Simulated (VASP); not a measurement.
# Transverse strain, stress and strain energy of diamond-structure carbon under uniaxial [001] stress, LDA, −2 % to +2 %

The usual rule of thumb says that a stretched solid narrows by a quarter to a third of its elongation, and that this fraction is a constant of the material. I put both halves of the rule to the test on carbon in the diamond structure, loaded along a cube axis. The answer matters for diamond resonators and for strained diamond electronics, where a film or beam is held along one direction and free to move along another. What is calculated is the strain across the axis at vanishing transverse stress, together with the axial stress and the energy per atom. Strains and energies are counted from the crystal relaxed with LDA, and tension is positive. The comparison is with linear elasticity, not with experiment.

## Set-up

The start is a typed prototype cell. The crystal was relaxed with LDA. Strain is imposed along [001]; the strain across the axis is adjusted until the stress across it vanishes, and the atoms are relaxed with LDA. VASP 6.6.1, plane waves with PAW, cutoff 600 eV, no spin polarisation, no spin-orbit coupling, k mesh 14×14×14, static lattice.

Notes on method and selection:

- Runs that did not converge, have known faults or may not be shown are not listed, and runs on Ansatz's PAW sets soft_1 and soft_2 are kept to separate tables.

Columns:

- strain (%): strain along the axis (tension positive).
- gap (eV): band gap on the k mesh at LDA.
- transverse strain (%): strain across the axis.
- stress (GPa): stress along the axis, tension positive.
- strain energy (meV/atom): energy per atom above the relaxed crystal.

Input lines of one member:

```
PREC = Accurate
ENCUT = 600
EDIFF = 1E-07
NELM = 120
ISMEAR = 0
SIGMA = 0.02
LREAL = .FALSE.
ALGO = Normal
GGA = CA
NBANDS = 10
LASPH = .TRUE.
LORBIT = 11
KPAR = 3
IBRION = 1
NSW = 25
```

Command (options for logging and memory left out): `mpirun -np 3 vasp_std`

## Computed values

| member | strain (%) | gap (eV) | transverse strain (%) | stress (GPa) | strain energy (meV/atom) |
| --- | --- | --- | --- | --- | --- |
| −2 % | −2.0 | 3.606 | 0.267 | −21.60 | 7.87 |
| −1.5 % | −1.5 | 3.748 | 0.196 | −16.17 | 4.49 |
| −1 % | −1.0 | 3.889 | 0.129 | −10.76 | 2.05 |
| −0.5 % | −0.5 | 4.028 | 0.064 | −5.38 | 0.55 |
| 0 % | 0.0 | ? | ? | ? | ? |
| +0.5 % | 0.5 | 4.085 | −0.056 | 5.29 | 0.32 |
| +1 % | 1.0 | 4.004 | −0.111 | 10.58 | 1.57 |
| +1.5 % | 1.5 | 3.924 | −0.163 | 15.84 | 3.71 |
| +2 % | 2.0 | 3.845 | −0.214 | 21.05 | 6.76 |

Cells marked ? are withheld until the estimate has been made.

transverse strain (%) against strain (%), members shown:

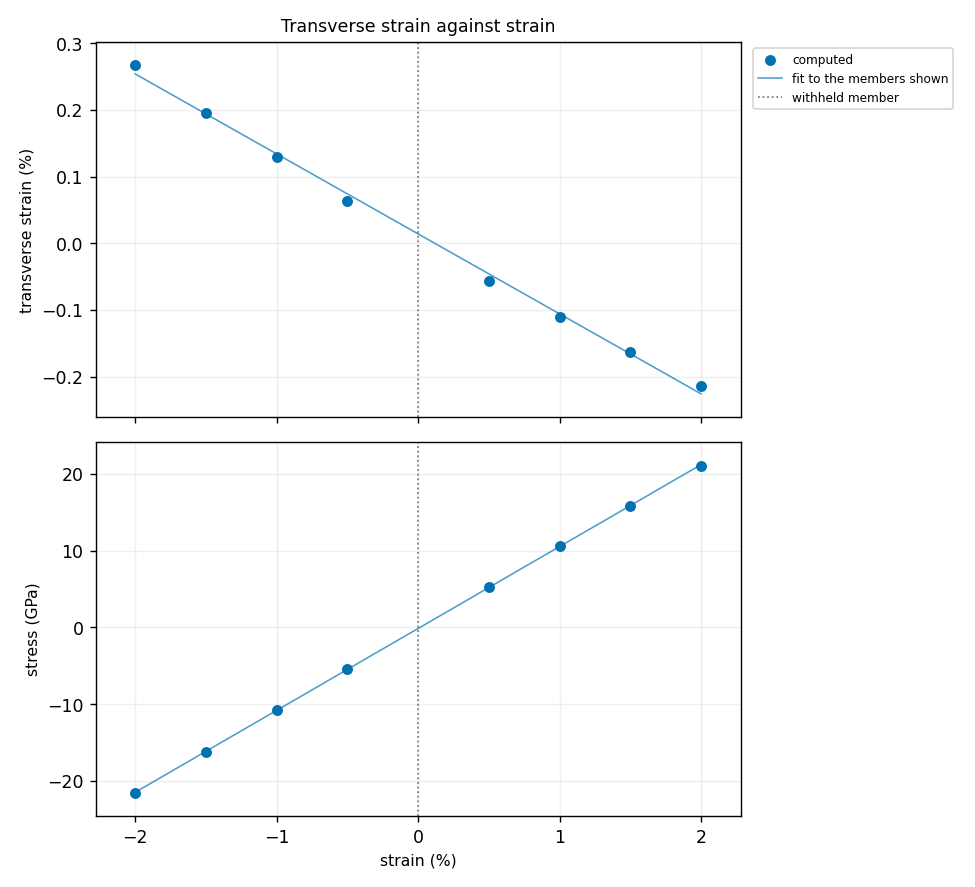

Least-squares fits to the members shown, with x = strain (%); R² and errors in the fitted variable (y, or ln y where the fit is in ln y):

| y | members | fit | R² | rms residual | leave-one-out rms | the same for the mean of the others |
| --- | --- | --- | --- | --- | --- | --- |
| transverse strain (%) | 8 | y = 0.01400 − 0.1200 x | 1.00 | 0.0085 | 0.012 | 0.19 |
| stress (GPa) | 8 | y = −0.14375 + 10.666 x | 1.00 | 0.087 | 0.13 | 17 |

## Mechanism

The sides move far less than the rule of thumb suggests. Between −2 % and +2 % the mean slope is (−0.214 − 0.267) / 4.0 = −0.120, so Poisson's ratio $\nu$ is 0.120.

Geometry helps to explain why it is small. To first order each bond changes its length by $(\varepsilon_\parallel + 2\varepsilon_\perp)/3$. Keeping the bond lengths would need $\nu = 0.5$, while keeping the bond angles would need $\nu = -1$. Carbon's tetrahedral bonds resist bending strongly, so the compromise lies well below 0.5. The atoms keep their fractional positions by symmetry, and no internal displacement softens the response.

The stress slope across the innermost pair is (5.29 + 5.38) / 1.0 = 10.67 GPa per %, a Young's modulus $E$ of 10.67 × 100 = 1067 GPa. For a cubic crystal loaded along [001] three more moduli follow:

- $B = E/[3(1-2\nu)]$: 1067 / (3 × (1 − 2 × 0.120)) = 468 GPa
- $C_{11}-C_{12} = E/(1+\nu)$: 1067 / (1 + 0.120) = 953 GPa
- $C_{11} = B + \tfrac{2}{3}(C_{11}-C_{12})$: 468 + 2 × 953 / 3 = 1103 GPa, which leaves 1103 − 953 = 150 GPa for $C_{12}$

This loading does not probe $C_{44}$.

Linearity holds much better for the stress than for the sides. From the outermost compressive interval to the outermost tensile one, the stress slope falls from 10.86 to 10.42 GPa per %, about 4 %, while the local Poisson's ratio falls from 0.142 to 0.102. A possible cause is that shortened bonds stiffen against further shortening, which pushes the sides out more.

The strain energy needs care. At ±0.5 % it is 0.55 and 0.32 meV/atom, although the stresses differ in size by under 2 %. The gap between the two signs grows almost in proportion to strain (0.55 − 0.32 = 0.23 meV/atom at 0.5 %, then 0.48, 0.78 and 1.11 meV/atom), whereas anharmonicity would make it grow as the cube. The likely cause is the plane-wave basis, which changes with the cell at fixed cutoff and shifts the energy minimum away from zero stress. Averaging the two signs removes this term.

## A prediction

Plain estimates from the members shown:

- 0 %, fit at x = 0.0: 0.014 %
- 0 %, straight-line interpolation between −0.5 % and +0.5 %: w = (0.0 − (−0.5)) / (0.5 − (−0.5)) = 0.500, so 0.064 + 0.500 × (−0.056 − 0.064) = 0.004 %

If the 0 % row were simply the reference crystal, its transverse strain would be zero by definition. The neighbours hint at a small offset instead, so I treat the row as one more cell whose sides were adjusted.

The fitted line gives 0.014 %, which is too high because a straight line through curved data misses at the centre. Interpolation between the nearest neighbours gives 0.004 % and still contains a little curvature. To remove it I average each ± pair, which cancels the odd terms, and take the rest as $c + b x^2$. The pair means are (0.064 − 0.056) / 2 = 0.0040 at 0.5 % and (0.267 − 0.214) / 2 = 0.0265 at 2 %, so $b$ = (0.0265 − 0.0040) / (4 − 0.25) = 0.0060 and $c$ = 0.0040 − 0.25 × 0.0060 = 0.0025 %. Tried on the other pairs, this gives 0.0085 at 1 % and 0.0160 at 1.5 %, against (0.129 − 0.111) / 2 = 0.0090 and (0.196 − 0.163) / 2 = 0.0165 from the table.

The stress supports the offset. Its pair means are (5.29 − 5.38) / 2 = −0.045 GPa at 0.5 % and (21.05 − 21.60) / 2 = −0.275 GPa at 2 %, and the same treatment leaves −0.045 + 0.25 × (0.275 − 0.045) / 3.75 = −0.030 GPa at zero strain, as if the reference lattice constant were too short by 0.030 / 10.67 = 0.0028 %. Free sides would then open by 0.0028 × (1 + 0.120) = 0.003 %.

The misses of 0.0005, with the rounding of the entries, would justify an error of about 0.001. I widen it to 0.002 because the offset is hardly larger than the last printed digit. An exact zero, should the row be the reference itself after all, would still fall outside.

**Committed estimate, 0 %: transverse strain = 0.003 ± 0.002 %.**

## The answer

| member | strain (%) | gap (eV) | transverse strain (%) | stress (GPa) | strain energy (meV/atom) |
| --- | --- | --- | --- | --- | --- |
| 0 % | 0.0 | 4.165 | 0.004 | −0.03 | 0.00 |

| member | estimate | transverse strain (%) | computed | estimate − computed | miss in error bars |
| --- | --- | --- | --- | --- | --- |
| 0 % | committed | 0.003 | 0.004 | −0.001 | 0.5 |
| 0 % | fit | 0.014 | 0.004 | +0.010 |  |
| 0 % | interpolation | 0.004 | 0.004 | 0.000 |  |

transverse strain (%) against strain (%):

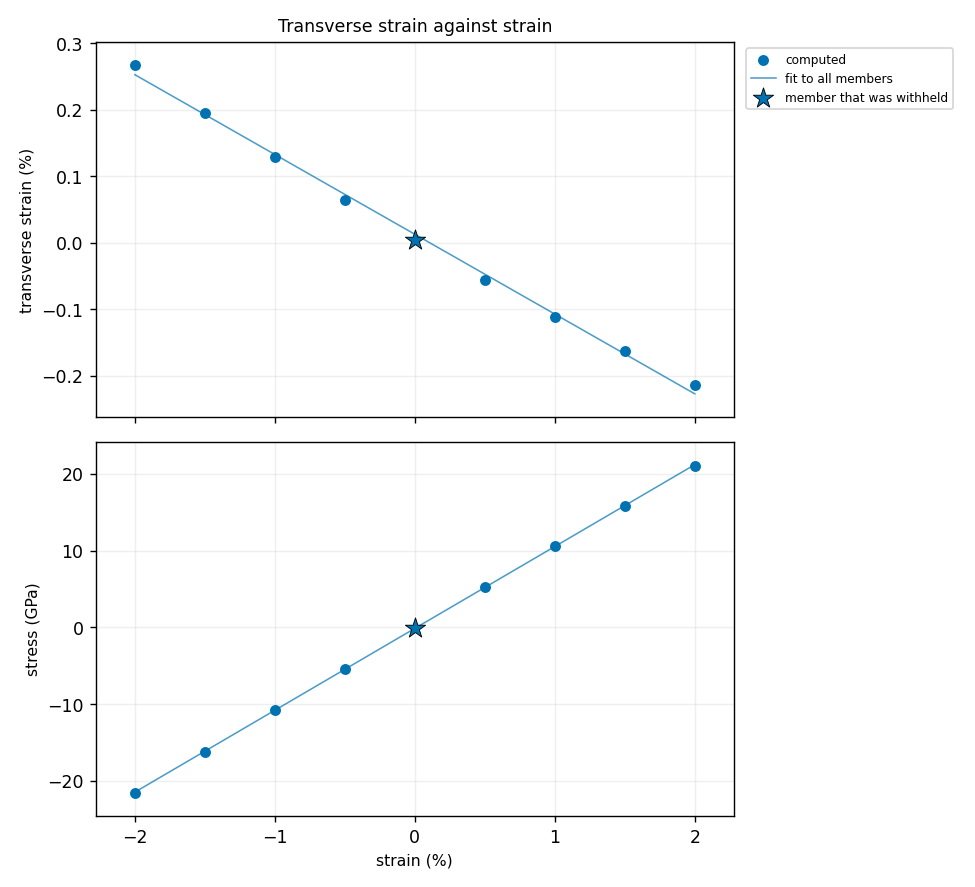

The estimate of 0.003 ± 0.002 % holds. The computed value is 0.004 %, half an error bar away. The fitted line misses by 0.010 %, while the plain interpolation I had corrected gives the computed value exactly. My correction for curvature therefore brought no gain, though the difference is only one unit of the last printed digit.

The argument from the stress held. I had inferred a remaining axial stress of −0.030 GPa at zero strain, and the row shows −0.03 GPa. The reference crystal is very slightly compressed, so its sides open when they are freed while the axis stays fixed. The exact zero of an untouched reference, which would have fallen outside my error bar, did not occur.

This offset is a numerical residue of relaxing the reference cell and says nothing about carbon's elasticity. It does not touch Poisson's ratio, which comes from differences between rows.

## Departures from the trend

Least-squares fits to the whole series, with x = strain (%); R² and errors in the fitted variable (y, or ln y where the fit is in ln y):

| y | members | fit | R² | rms residual | leave-one-out rms | the same for the mean of the others |
| --- | --- | --- | --- | --- | --- | --- |
| transverse strain (%) | 9 | y = 0.01289 − 0.1200 x | 1.00 | 0.0086 | 0.012 | 0.17 |
| stress (GPa) | 9 | y = −0.13111 + 10.666 x | 1.00 | 0.090 | 0.13 | 15 |

Largest departures from the fit to the whole series:

| member | transverse strain (%) | fit | computed − fit | in rms residuals |
| --- | --- | --- | --- | --- |
| −2 % | 0.267 | 0.253 | +0.014 | 1.6 |
| +2 % | −0.214 | −0.227 | +0.013 | 1.5 |
| +0.5 % | −0.056 | −0.047 | −0.009 | 1.0 |
| 0 % | 0.004 | 0.013 | −0.009 | 1.0 |

No single row stands out; the largest departures from the line form a pattern. Both ends lie above it, by 0.014 % at −2 % and 0.013 % at +2 %, while the rows at 0 % and +0.5 % lie 0.009 % below. That is what a straight line does to a gently curved series.

The curvature of 0.0060 per %² found from the pair means accounts for the size: between the centre and either end it gives 0.0060 × 4 = 0.024 %, against 0.014 + 0.009 = 0.023 % on the compressive side. The likeliest reason is the crystal's anharmonicity, which makes the sides respond more under compression than under tension.

## Conclusions and limits

Between −2 % and +2 %, $\varepsilon_\perp = 0.003 - 0.120\,x + 0.006\,x^2$ (both strains in %) reproduces all nine rows to 0.001 %, with a typical miss of 0.0006 % against 0.0086 % for the straight line. A new strain inside this range should come out about as well.

Hooke's law with 10.67 GPa per % gives 2 × 10.67 = 21.34 GPa at 2 %, within about 1 % of the computed size for either sign. A constant Poisson's ratio of 0.120 misses the transverse strain there by 10 to 12 %.

In practice, 1 GPa of tension stretches the crystal by 1 / 10.67 = 0.094 % and narrows it by 0.094 × 0.120 = 0.011 %, about 1.1 nm on a beam 10 µm wide.

Zero-point motion, left out here, expands the lattice, by an amount that is not small beside the transverse strains in the table. Most of that shifts the reference and cancels in the strains, but it should also soften the moduli slightly.

[Logs are printed without paths, hosts, clocks, repeated set-up lines and the standing remarks that a program may print on its own settings, such as how far it seeks lower states.]
